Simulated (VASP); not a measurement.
# YB6 (Pm-3m) in LDA: pressure and energy for volumes within 6% of equilibrium

Squeezing YB6 by 6% in volume costs more energy than stretching it by 6%, although both start from the same minimum. I use this series to see how large that asymmetry is and what it says about the stiffness of the crystal. The question has practical weight: YB6 is a superconductor at a few kelvin, and pressure or a misfitting substrate changes the volume on which its electrons and phonons depend. Seven volumes were calculated in LDA with the cell scaled evenly. Volume change is measured from the fitted equilibrium of 9.44 Å³ per atom, energy from the lowest point of the series, and positive pressure means a compressed cell.

## Set-up

A cell from the Materials Project database, relaxed at this level and then scaled evenly, fractional positions kept. VASP 6.6.1, plane waves with PAW, LDA, cutoff 420 eV, k mesh 6×6×6, no spin polarisation, no spin-orbit coupling, static lattice. A Birch-Murnaghan fit to the energies has its minimum at 9.44 Å³ per atom.

Notes on method and selection:

- The pressure is that of a finite plane-wave basis, so it need not vanish exactly at the minimum of the energy.
- Only series whose fit has its minimum inside the range and an error under 0.5 meV per atom are shown.
- Where rows or columns differ in functional or spin-orbit coupling, non-spherical gradient terms in the PAW spheres (LASPH) may be on in some and off in others.
- Runs that did not converge, have known faults or may not be shown are not listed, and runs on Ansatz's PAW sets soft_1 and soft_2 are kept to separate tables.

Columns:

- volume change (%): volume relative to the fitted equilibrium volume.
- pressure (GPa): pressure from the stress tensor (positive: compressed).
- energy (meV/atom): energy per atom above the lowest point of the series.

Input lines of one member:

```
PREC = Accurate
ENCUT = 420
EDIFF = 1E-06
NELM = 100
ISMEAR = 0
SIGMA = 0.05
LREAL = .FALSE.
ALGO = Normal
GGA = CA
NBANDS = 21
LASPH = .TRUE.
LORBIT = 11
KPAR = 4
ISIF = 2
```

Command (options for logging and memory left out): `mpirun -np 4 vasp_std`

## Data

```
member    volume change (%)  pressure (GPa)  energy (meV/atom)
8.88 Å³   −6.01              13.00           22.01
9.07 Å³   −4.01              8.25            9.49
9.25 Å³   −2.01              3.93            2.31
9.44 Å³   −0.01              −0.04           0.00
9.63 Å³   1.99               −3.62           2.14
9.82 Å³   3.99               −6.92           8.34
10.01 Å³  5.99               −9.92           18.26
```

pressure (GPa) against volume change (%):

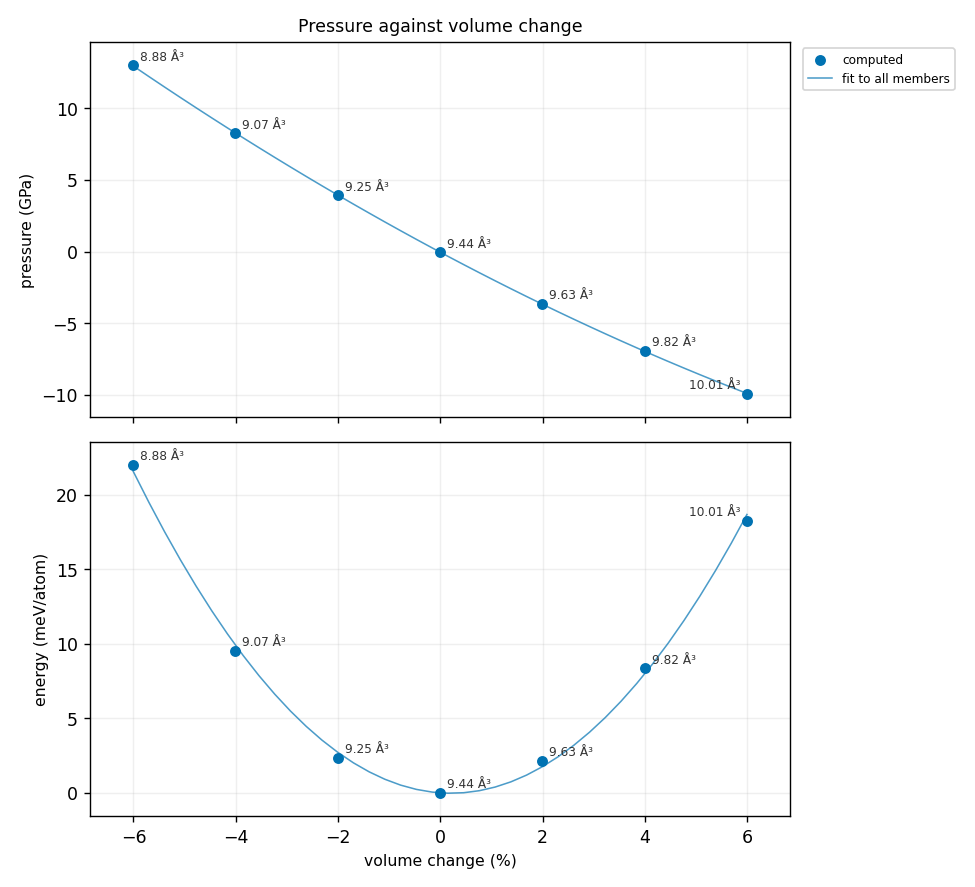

Least-squares fits to the whole series, with x = volume change (%); R² and errors in the fitted variable (y, or ln y where the fit is in ln y):

```
y                  members  fit                                     R²    rms residual  leave-one-out rms  the same for the mean of the others
pressure (GPa)     7        y = −0.047136 − 1.9036 x + 0.043542 x²  1.00  0.032         0.083              8.9
energy (meV/atom)  7        y = −0.01906 − 0.2338 x + 0.5595 x²     1.00  0.38          1.0                9.1
```

## Interpretation

The pressure falls at every step as the cell grows, from 13.00 GPa at −6.01% to −9.92 GPa at +5.99%. The two rows on either side of equilibrium give the bulk modulus, B = −V dP/dV, as 100 × (3.93 + 3.62) / (1.99 + 2.01) = 189 GPa. That is a stiff solid, as a three-dimensional network of boron–boron bonds would lead me to expect.

The fall is not a straight line. Between the two most compressed rows the pressure changes by (13.00 − 8.25) / 2.00 = 2.38 GPa per percent of volume, and between the two most expanded rows by (9.92 − 6.92) / 2.00 = 1.50 GPa per percent. The crystal stiffens when squeezed and softens when stretched.

The energy shows the same thing. It rises by 22.01 meV per atom at the compressed end and by 18.26 at the expanded end, a ratio of 22.01 / 18.26 = 1.21. A harmonic solid would give nearly equal values, ½BV₀(x/100)² with x in percent. With 1 GPa Å³ = 6.24 meV this is 0.5 × 189 × 9.44 × 0.06² × 6.24 = 20.0 meV per atom at 6%, which lies between the two computed energies.

The reason lies in the shape of any bond's energy curve. When atoms are pushed together, the kinetic energy of the confined electrons and the repulsion between overlapping shells rise steeply. When they are drawn apart, the attraction fades and the restoring force grows ever more slowly.

The boron octahedra resist the change more than their surroundings do. In the compressed cells the forces push each boron atom away from the centre of its octahedron, and in the expanded cells they pull it inwards.

## Outliers

Largest departures from the fit to the whole series:

```
member    pressure (GPa)  fit    computed − fit  in rms residuals
9.63 Å³   −3.62           −3.66  +0.04           1.4
9.07 Å³   8.25            8.29   −0.04           1.2
8.88 Å³   13.00           12.97  +0.03           1.1
10.01 Å³  −9.92           −9.89  −0.03           1.0
```

No volume falls off the smooth curve. The largest departures from the quadratic pressure fit are +0.04 GPa at 9.63 Å³ and −0.04 GPa at 9.07 Å³, followed by the two end members. Their signs alternate along the series in the way a missing cubic term would produce, so I put them down to the form of the fit.

The energy makes this plainer. Its quadratic fit misses by 0.38 meV per atom rms, which is almost a fifth of the 2.14 meV at +1.99%. A quadratic and a cubic coefficient can be had from the two end rows alone, by comparing E/x² across their distance of 6.01 + 5.99 = 12.00 in x. The cubic one is (22.01 / 6.01² − 18.26 / 5.99²) / 12.00 = 0.0084 in size, and I get E = 0.559 x² − 0.0084 x³, with x in percent and E in meV per atom. This comes within about 0.04 meV of all seven rows, whereas predicting each row by the mean of the others misses by 9.1 meV rms.

The row at 9.44 Å³ has a small oddity of another kind. At −0.01% the pressure should be about +0.02 GPa, but the table gives −0.04. The finite plane-wave basis can account for such an offset, which shifts the volume of zero pressure by only about 0.03%.

## Using the table

**Which volume corresponds to 5 GPa?**
The target lies between the rows at −2.01% (3.93 GPa) and −4.01% (8.25 GPa). The slope there is (8.25 − 3.93) / 2.00 = 2.16 GPa per percent. The further compression needed is (5 − 3.93) / 2.16 = 0.50%, so the volume change is −2.01 − 0.50 = −2.51%. That is 9.44 × (1 − 2.51 / 100) = 9.20 Å³ per atom, with a cell edge shorter by about 0.8%.

**What pressure appears if the cell edge is set 1% too long?**
The volume grows with the cube of the edge, so x = 100 × ((1 + 1 / 100)³ − 1) = 3.03%. The pressure fit gives −0.047 − 1.9036 × 3.03 + 0.043542 × 3.03² = −5.4 GPa. An error in the edge that looks harmless therefore produces a stress of several GPa.

**Do the stresses agree with the energies at this cutoff?**
The work done between two volumes is the mean pressure times the volume step, here 9.44 × 2.00 / 100 = 0.189 Å³ per atom.

- From −4.01% to −6.01%: (13.00 + 8.25) / 2 × 0.189 × 6.24 = 12.5 meV, and the energies differ by 22.01 − 9.49 = 12.52 meV.
- From +3.99% to +5.99%: (6.92 + 9.92) / 2 × 0.189 × 6.24 = 9.9 meV, and the energies differ by 18.26 − 8.34 = 9.92 meV.

They agree at both ends, so at 420 eV the stress tensor can be used directly for this equation of state.

## Conclusions and limits

Within 6% of equilibrium, YB6 in LDA behaves as a stiff solid with a bulk modulus near 189 GPa that rises on compression. A parabola is too crude for the energy over this range, and one cubic term repairs it.

Three approximations affect the values. The boron coordinate was held at its equilibrium fraction; letting it relax would lower the energy at every scaled volume and make the crystal somewhat softer. LDA usually binds solids too strongly, which makes the equilibrium volume too small and the bulk modulus too high. The lattice is static, and zero-point and thermal motion would expand the cell and soften it further. All three corrections lower the bulk modulus, so I read 189 GPa as more likely too high than too low.

[Logs are printed without paths, hosts, clocks, repeated set-up lines and the standing remarks that a program may print on its own settings, such as how far it seeks lower states.]
